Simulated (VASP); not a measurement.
# Wall time of one PBEsol SCF run on rock-salt SnAs against electronic solver and density mixing

SnAs in the rock-salt structure has one tin and one arsenic atom per primitive cell. With four and five valence s and p electrons the count is odd, so without spin polarisation a band stays partly filled and the compound is a metal. Metals are where density mixing can go wrong, because mobile electrons overscreen an error in the trial density. My question is how much the solver and the mixer change the wall time of one self-consistent run at fixed atoms. It matters for surveys of metallic compounds, where such a run is repeated many times. I take the times in seconds and compare them with the run ALGO = Normal, which also sets the zero of the energy error.

## Calculations

A cell from the Materials Project database. VASP 6.6.1, plane waves with PAW, PBEsol, 2 atoms at fixed positions, no spin polarisation, no spin-orbit coupling. Held fixed: cutoff 400 eV, k mesh 7×7×7, ISMEAR = -1, SIGMA = 0.05 eV and 2 MPI ranks. Each row is named by the tags or value that set it apart; differences are taken from the run 'ALGO = Normal'. All ran on AMD EPYC 7R43 64-Core Processor (Zen 3), shared with other work, so times are rough.

Notes on method and selection:

- Runs that did not converge, have known faults or may not be shown are not listed, and runs on Ansatz's PAW sets soft_1 and soft_2 are kept to separate tables.

Columns:

- energy error (meV/atom): energy per atom extrapolated to zero smearing, less that of the reference (ALGO = Normal).
- cycles: SCF cycles.

Input lines of one member:

```
PREC = Accurate
ENCUT = 400
EDIFF = 1E-06
NELM = 100
ISMEAR = -1
SIGMA = 0.05
LREAL = .FALSE.
ALGO = Normal
GGA = PS
NBANDS = 15
LORBIT = 11
KPAR = 2
ISIF = 2
```

Command (options for logging and memory left out): `mpirun -np 2 vasp_std`

## Numbers

| member | energy error (meV/atom) | cycles | wall time (s) |
| --- | --- | --- | --- |
| ALGO = Damped | 0.000 | 20 | 9.00 |
| AMIX = 0.1, BMIX = 0.01 | 0.000 | 14 | 8.60 |
| AMIX = 0.8 | 0.000 | 11 | 7.00 |
| ALGO = VeryFast | 0.000 | 20 | 11.20 |
| ALGO = Normal | 0.000 | 12 | 7.00 |
| IMIX = 1, AMIX = 0.2 | 0.001 | 24 | ? |
| ALGO = All | 0.000 | 16 | 9.40 |
| ALGO = Fast | 0.000 | 13 | 9.00 |

Cells marked ? are withheld until the estimate has been made.

wall time (s) by member, members shown:

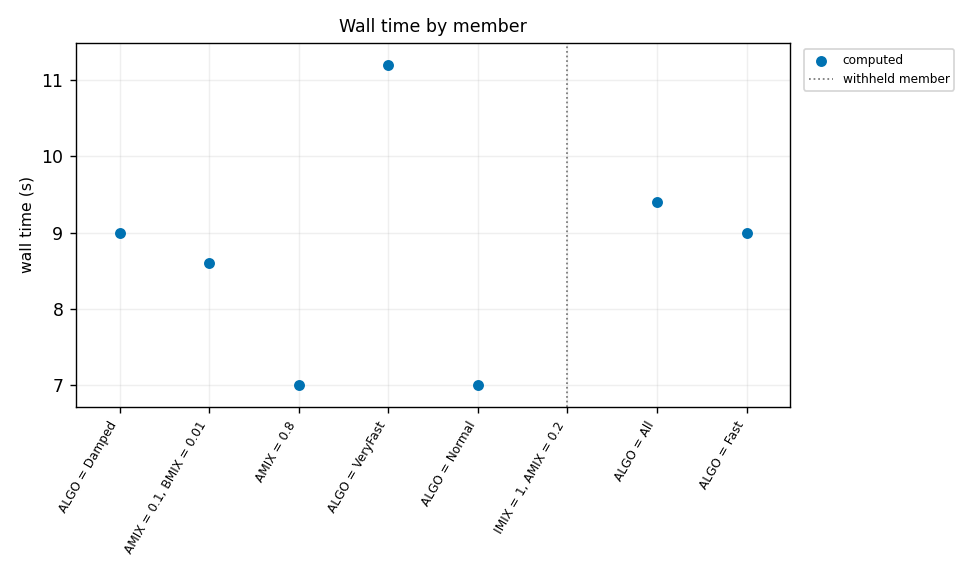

## Mechanism

The energies first: every run ends within 0.001 meV/atom of ALGO = Normal, so the settings change the path to the ground state and leave the result alone.

The times run from 7.00 s to 11.20 s, a ratio of 11.20 / 7.00 = 1.6. On a shared host that is too little to rank the solvers. The cycle counts are firmer evidence. With the Normal solver, AMIX = 0.8 needs 11 cycles, the default mixing 12, and AMIX = 0.1 with BMIX = 0.01 needs 14. Even an eightfold change of AMIX, with BMIX changed as well, therefore costs only three cycles. I put this down to two things. The mixer in these runs keeps a history of earlier densities and corrects a poor first step from it. The cell is also tiny, so it has no long-wavelength density waves, which are the ones a metal overscreens most.

Each cycle repeats the work on the orbitals, so time should follow a fixed start-up plus a cost per cycle. Five of the timed runs mix the density: the three with the Normal solver, Fast and VeryFast. Their mean cycle count is (14 + 11 + 12 + 13 + 20) / 5 = 14 and their mean time is (8.60 + 7.00 + 7.00 + 9.00 + 11.20) / 5 = 8.56 s. The squared deviations of the cycle count from its mean sum to 50, so the least-squares slope is (0 × 8.60 − 3 × 7.00 − 2 × 7.00 − 1 × 9.00 + 6 × 11.20) / 50 = 0.464 s per cycle, and the intercept is 8.56 − 0.464 × 14 = 2.06 s. The line is

$$t = 2.06 + 0.464\,n,$$

with $t$ in seconds and $n$ the number of cycles. Leaving out each run in turn, the line misses by 1.0 s (root mean square), against about 1.9 s for the mean of the others, so the cycle count does carry information.

The two solvers that optimise the orbitals directly are a separate test. ALGO = All fits: the line gives 2.06 + 0.464 × 16 = 9.5 s, against 9.40 s. ALGO = Damped does not: the line gives 2.06 + 0.464 × 20 = 11.3 s, against 9.00 s. A cycle is not the same amount of work in every solver, and I use the line only for runs that mix the density.

## An estimate before looking

Plain estimates from the members shown:

- IMIX = 1, AMIX = 0.2, mean of the 7 members shown: 8.74 s, standard deviation 1.3

The run with IMIX = 1 and AMIX = 0.2 took 24 cycles, twice the 12 of ALGO = Normal. That fits the physics: IMIX = 1 mixes without a history, so each step removes only a fraction of the density error, and a small AMIX keeps that fraction small. The mixing itself costs almost nothing beside the work on the orbitals, so a cycle should cost about what it does in the other density-mixing runs.

The mean of the seven members, 8.74 s, ignores the cycle count, and I set it aside. The line for density-mixing runs gives 2.06 + 0.464 × 24 = 13.2 s.

As a trial I left out VeryFast and refitted the other four. That line predicts 13.0 s at 20 cycles, against 11.20 s in the table, a miss of 1.8 s. It was a harsh trial, since those four runs span only 11 to 14 cycles. It also shows that the slope leans on VeryFast, whose solver is not that of the run to be estimated.

For the error bar, the scatter about the five-point line (root of the summed squared residuals over 5 − 2 = 3) is roughly 0.65 s. The mean cycle count is 14 and the squared deviations from it sum to 50, so at 24 cycles the standard error is 0.65 × √(1 + 1/5 + 10²/50) = 1.2 s. The largest term under the root is the last, because the new run lies ten cycles from the mean of the fit and beyond its longest run.

**Committed estimate, IMIX = 1, AMIX = 0.2: wall time = 13.2 ± 1.2 s.**

## Check

| member | energy error (meV/atom) | cycles | wall time (s) |
| --- | --- | --- | --- |
| IMIX = 1, AMIX = 0.2 | 0.001 | 24 | 13.80 |

| member | estimate | wall time (s) | computed | estimate − computed | miss in error bars |
| --- | --- | --- | --- | --- | --- |
| IMIX = 1, AMIX = 0.2 | committed | 13.20 | 13.80 | −0.60 | 0.5 |
| IMIX = 1, AMIX = 0.2 | mean | 8.74 | 13.80 | −5.06 |  |

wall time (s) by member:

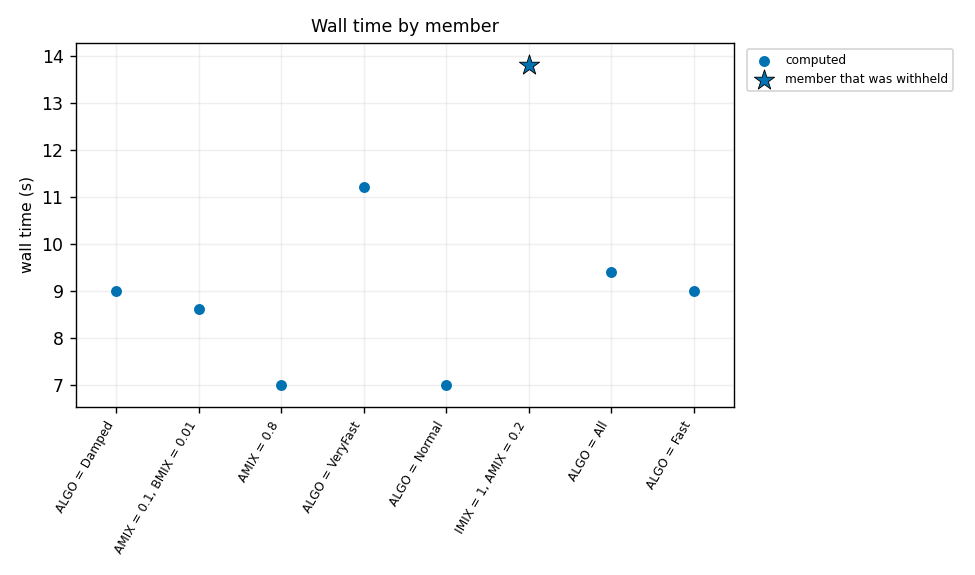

The run took 13.80 s against my estimate of 13.2 ± 1.2 s, so the miss of 0.60 s is half an error bar. The mean of the other seven was 5.06 s too low.

The argument from the cycle count held. Plain mixing without a history, at AMIX = 0.2, took twice the cycles of ALGO = Normal, and each cycle cost about what it does in the other density-mixing runs. The extra time therefore comes from repeating the work on the orbitals, with no sign of a dearer cycle.

One earlier statement of mine was too broad. I wrote that the settings leave the result alone, and that is true of the energy only. The pressure and the Fermi level of this run differ visibly from those of the others, although its energy agrees to 0.001 meV/atom. Near the ground state the energy error goes with the square of the density error, while the pressure error is of first order. Slow mixing also makes the energy change little from one cycle to the next, so the run can meet its stopping threshold with more density error left.

## Departures from the trend

With the new run included, the line through the six density-mixing runs becomes

$$t = 1.6 + 0.50\,n,$$

with $t$ in seconds and $n$ the number of cycles. The run with IMIX = 1 has the longest time of the series, but it lies only 0.2 s above this line. As the run with the most cycles it pulls the line towards itself, so the fairer test is the earlier line, which was fitted without it and missed it by 0.60 s. Its cycle count accounts for most of its time.

ALGO = Damped stands farthest off. The line gives 1.6 + 0.50 × 20 = 11.6 s, and the run took 9.00 s, which is 2.6 s less. A possible reason is that a damped step moves the orbitals once along their gradient, which is less work than the repeated improvement of blocks of bands in a Normal cycle. That has the right sign, but uneven load on the shared host could account for part of the gap.

ALGO = Fast lies 0.9 s above the line. With rough times I give that no cause.

## What to take away

Between 11 and 24 cycles, the cycle count predicts the time of a density-mixing run on this cell. Leaving out each of the six runs in turn, the line misses by 0.7 s (root mean square), against about 2.9 s for the mean of the others. The rule doesn't carry over to ALGO = Damped. As for the solver, at default mixing the times go from 7.00 s for Normal to 11.20 s for VeryFast. No other solver beat Normal here, but one rough time for each is too little for a firm ranking.

In practice, plain mixing with AMIX = 0.2 costs 13.80 − 7.00 = 6.80 s more than the default. Over a thousand such runs that is 1000 × 6.80 / 3600 = 1.9 hours, and the pressure comes out less well converged. I would keep the default mixer here, and tighten EDIFF if plain mixing had to be used for pressures.

Spin-orbit coupling, which is off, should lengthen a run by more than the whole spread of the table. Two-component orbitals and twice as many bands would make each cycle roughly four times as dear, or more where symmetry is lost.

[Logs are printed without paths, hosts, clocks, repeated set-up lines and the standing remarks that a program may print on its own settings, such as how far it seeks lower states.]
